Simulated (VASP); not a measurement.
# Wall time of a PBE self-consistent run on a six-atom AlRu5 model cell with 1 to 8 MPI ranks, one k-point group per rank (VASP)

In a fixed potential the Bloch states at different k points can be solved independently, yet together they form the one density that sets that potential. How far a self-consistent run can be shared out by k point is therefore not obvious beforehand.

The question matters for a screening queue that must return each result quickly. The brief chosen here is one converged SCF run on a six-atom metallic cell without symmetry in at most 60 s, on no more than 8 ranks. Because the processors are shared with other work, a setting passes safely only if it would still meet the limit with its time doubled. The quantity compared is the wall time of the whole run, measured against the 60 s limit and against the one-rank run.

## Set-up

A model structure made by substituting elements in a known one; it need not exist. VASP 6.6.1, plane waves with PAW, PBE, 6 atoms at fixed positions without symmetry, no spin polarisation, no spin-orbit coupling. Held fixed: cutoff 400 eV, k mesh 5×5×5 and ISMEAR = -1, SIGMA = 0.05 eV. Each row is named by the tags or value that set it apart. All ran on AMD EPYC 7R43 64-Core Processor (Zen 3), shared with other work, so times are rough. The same in all rows: SCF cycles: 16.

Notes on method and selection:

- Runs that did not converge, have known faults or may not be shown are not listed, and runs on Ansatz's PAW sets soft_1 and soft_2 are kept to separate tables.

Columns:

- ranks: MPI ranks.
- KPAR: groups of k points worked in parallel (KPAR).

## Table of results

| member | ranks | KPAR | wall time (s) |
| --- | --- | --- | --- |
| 1 ranks | 1 | 1 | 170 |
| 2 ranks | 2 | 2 | 90 |
| 4 ranks | 4 | 4 | 46 |
| 8 ranks | 8 | 8 | 26 |

wall time (s) against ranks:

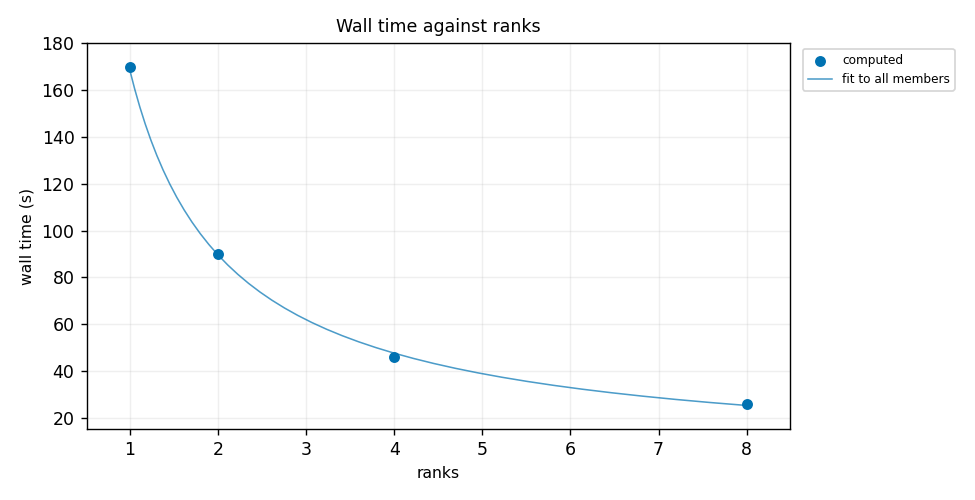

Least-squares fits to the whole series, with x = ranks; R² and errors in the fitted variable (y, or ln y where the fit is in ln y):

| y | members | fit | R² | rms residual | leave-one-out rms | the same for the mean of the others |
| --- | --- | --- | --- | --- | --- | --- |
| wall time (s) | 4 | ln y = 5.126 − 0.9095 ln x | 1.00 | 0.022 | 0.049 | 0.94 |

## Reading the trend

The wall time falls at every doubling of the ranks, from 170 s on one rank to 26 s on eight, a speed-up of 170 / 26 = 6.5. Every run takes 16 SCF cycles, so the gain comes from shorter cycles and not from fewer of them.

The fitted exponent is −0.91, where perfect sharing would give −1. One doubling thus divides the time by 2^0.91 = 1.9. The fit is far better than the mean of the other members, with a leave-one-out error of 0.049 against 0.94 in ln y. Within the range it gives about 33 s for 6 ranks.

The cause lies in the layout. KPAR rises together with the ranks, so each rank forms a group of its own and treats complete k points. The costly work on the orbitals then needs little communication; the groups mainly have to combine their contributions to the density and exchange band energies for the common Fermi level.

There is enough work to share. The mesh has 5 × 5 × 5 = 125 points, or (125 + 1) / 2 = 63 if k and −k are counted once, as is usual without magnetism. On eight ranks the busiest group then has 8 points, which would allow a speed-up of 63 / 8 = 7.9. Uneven sharing therefore costs very little. Work repeated in every group, communication and competition for memory bandwidth would all lengthen the run further, and are possible reasons for the rest of the shortfall.

The simplest estimate, t = 170 s / ranks, is too short by 5 s or less for each of the other three rows, while the times scatter about their mean by 55 s. It describes added k-point groups, not ranks added inside a group.

## Members off the line

Largest departures from the fit to the whole series:

| member | wall time (s) | fit | computed − fit | computed / fit | in rms residuals (of ln y) |
| --- | --- | --- | --- | --- | --- |
| 4 ranks | 46 | 48 | −2 | 0.96 | 1.6 |
| 8 ranks | 26 | 25 | +1 | 1.02 | 1.0 |
| 1 ranks | 170 | 168 | +2 | 1.01 | 0.4 |
| 2 ranks | 90 | 90 | 0 | 1.00 | 0.2 |

The largest departure from the fit is at 4 ranks, where 46 s stands against a fitted 48 s. The other rows lie within 2 s of the line. On shared processors, differences this small call for no explanation.

The last doubling gains a factor of 46 / 26 = 1.8, the one before it 90 / 46 = 2.0. On shared processors this difference is too small to mark the start of saturation.

The smooth series suggests that the background load did not change strongly from run to run. A steady load that slowed all four runs by the same factor would change only the prefactor of the fit and not its exponent. In that case the overall speed-up is more trustworthy than the absolute seconds.

## Choosing a member

Two working quantities follow from the wall time t in seconds and the number of ranks N, with 60 × 60 = 3600 seconds in an hour. The rate of consecutive runs is R = 3600 / t per hour, and the cost of a thousand runs is C = 1000 × N × t / 3600 rank-hours.

- **1 rank:** R = 3600 / 170 = 21 per hour, C = 47 rank-hours. Even half the time, 85 s, would exceed the limit, so this setting fails clearly.
- **2 ranks:** R = 3600 / 90 = 40 per hour, C = 50 rank-hours. The run misses the limit by 30 s, though a quieter machine might bring it below.
- **4 ranks:** R = 3600 / 46 = 78 per hour, C = 51 rank-hours. The run meets the limit as timed, but not with its time doubled (2 × 46 = 92 s).
- **8 ranks:** R = 3600 / 26 = 138 per hour, C = 58 rank-hours. The run meets the limit even with its time doubled (2 × 26 = 52 s).

The error that counts here is that of the timing; the accuracy of PBE for energies or structures does not enter. The pick is 8 ranks with KPAR = 8, the only row that keeps the full margin. The runner-up is 4 ranks with KPAR = 4.

Three changes would overturn the pick:

- A background load that slows the eight-rank run by a factor of more than 60 / 26 = 2.3 would push it past the limit.
- A limit relaxed to 100 s would let 4 ranks pass with the same margin, leaving the other four free.
- Scarce memory would favour fewer groups, since k-point groups keep copies of data that ranks within one group would share.

If total throughput mattered more than the wait for each result, the costs of 47 to 58 rank-hours would be too close to choose by. Several small runs side by side would then be a reasonable alternative, provided they do not slow one another through shared memory bandwidth.

## Conclusions and limits

From 1 to 8 ranks, with one k-point group per rank, the wall time of this cell falls almost in inverse proportion to the ranks. The rule depends on having many more k points than groups, and should not be carried over to a cell with only a few.

Two quantities held fixed here can change the time by more than the table's factor of 6.5. Doubling the mesh in each direction gives about 8 times as many k points and lengthens the run by roughly that factor, though it also leaves more points to share. Tripling the number of atoms at the same mesh lengthens it by very roughly 3 × 3 = 9 to 3 × 3 × 3 = 27 times, because the numbers of bands and of plane waves both grow with the cell, and the cost rises between the square and the cube of its size.
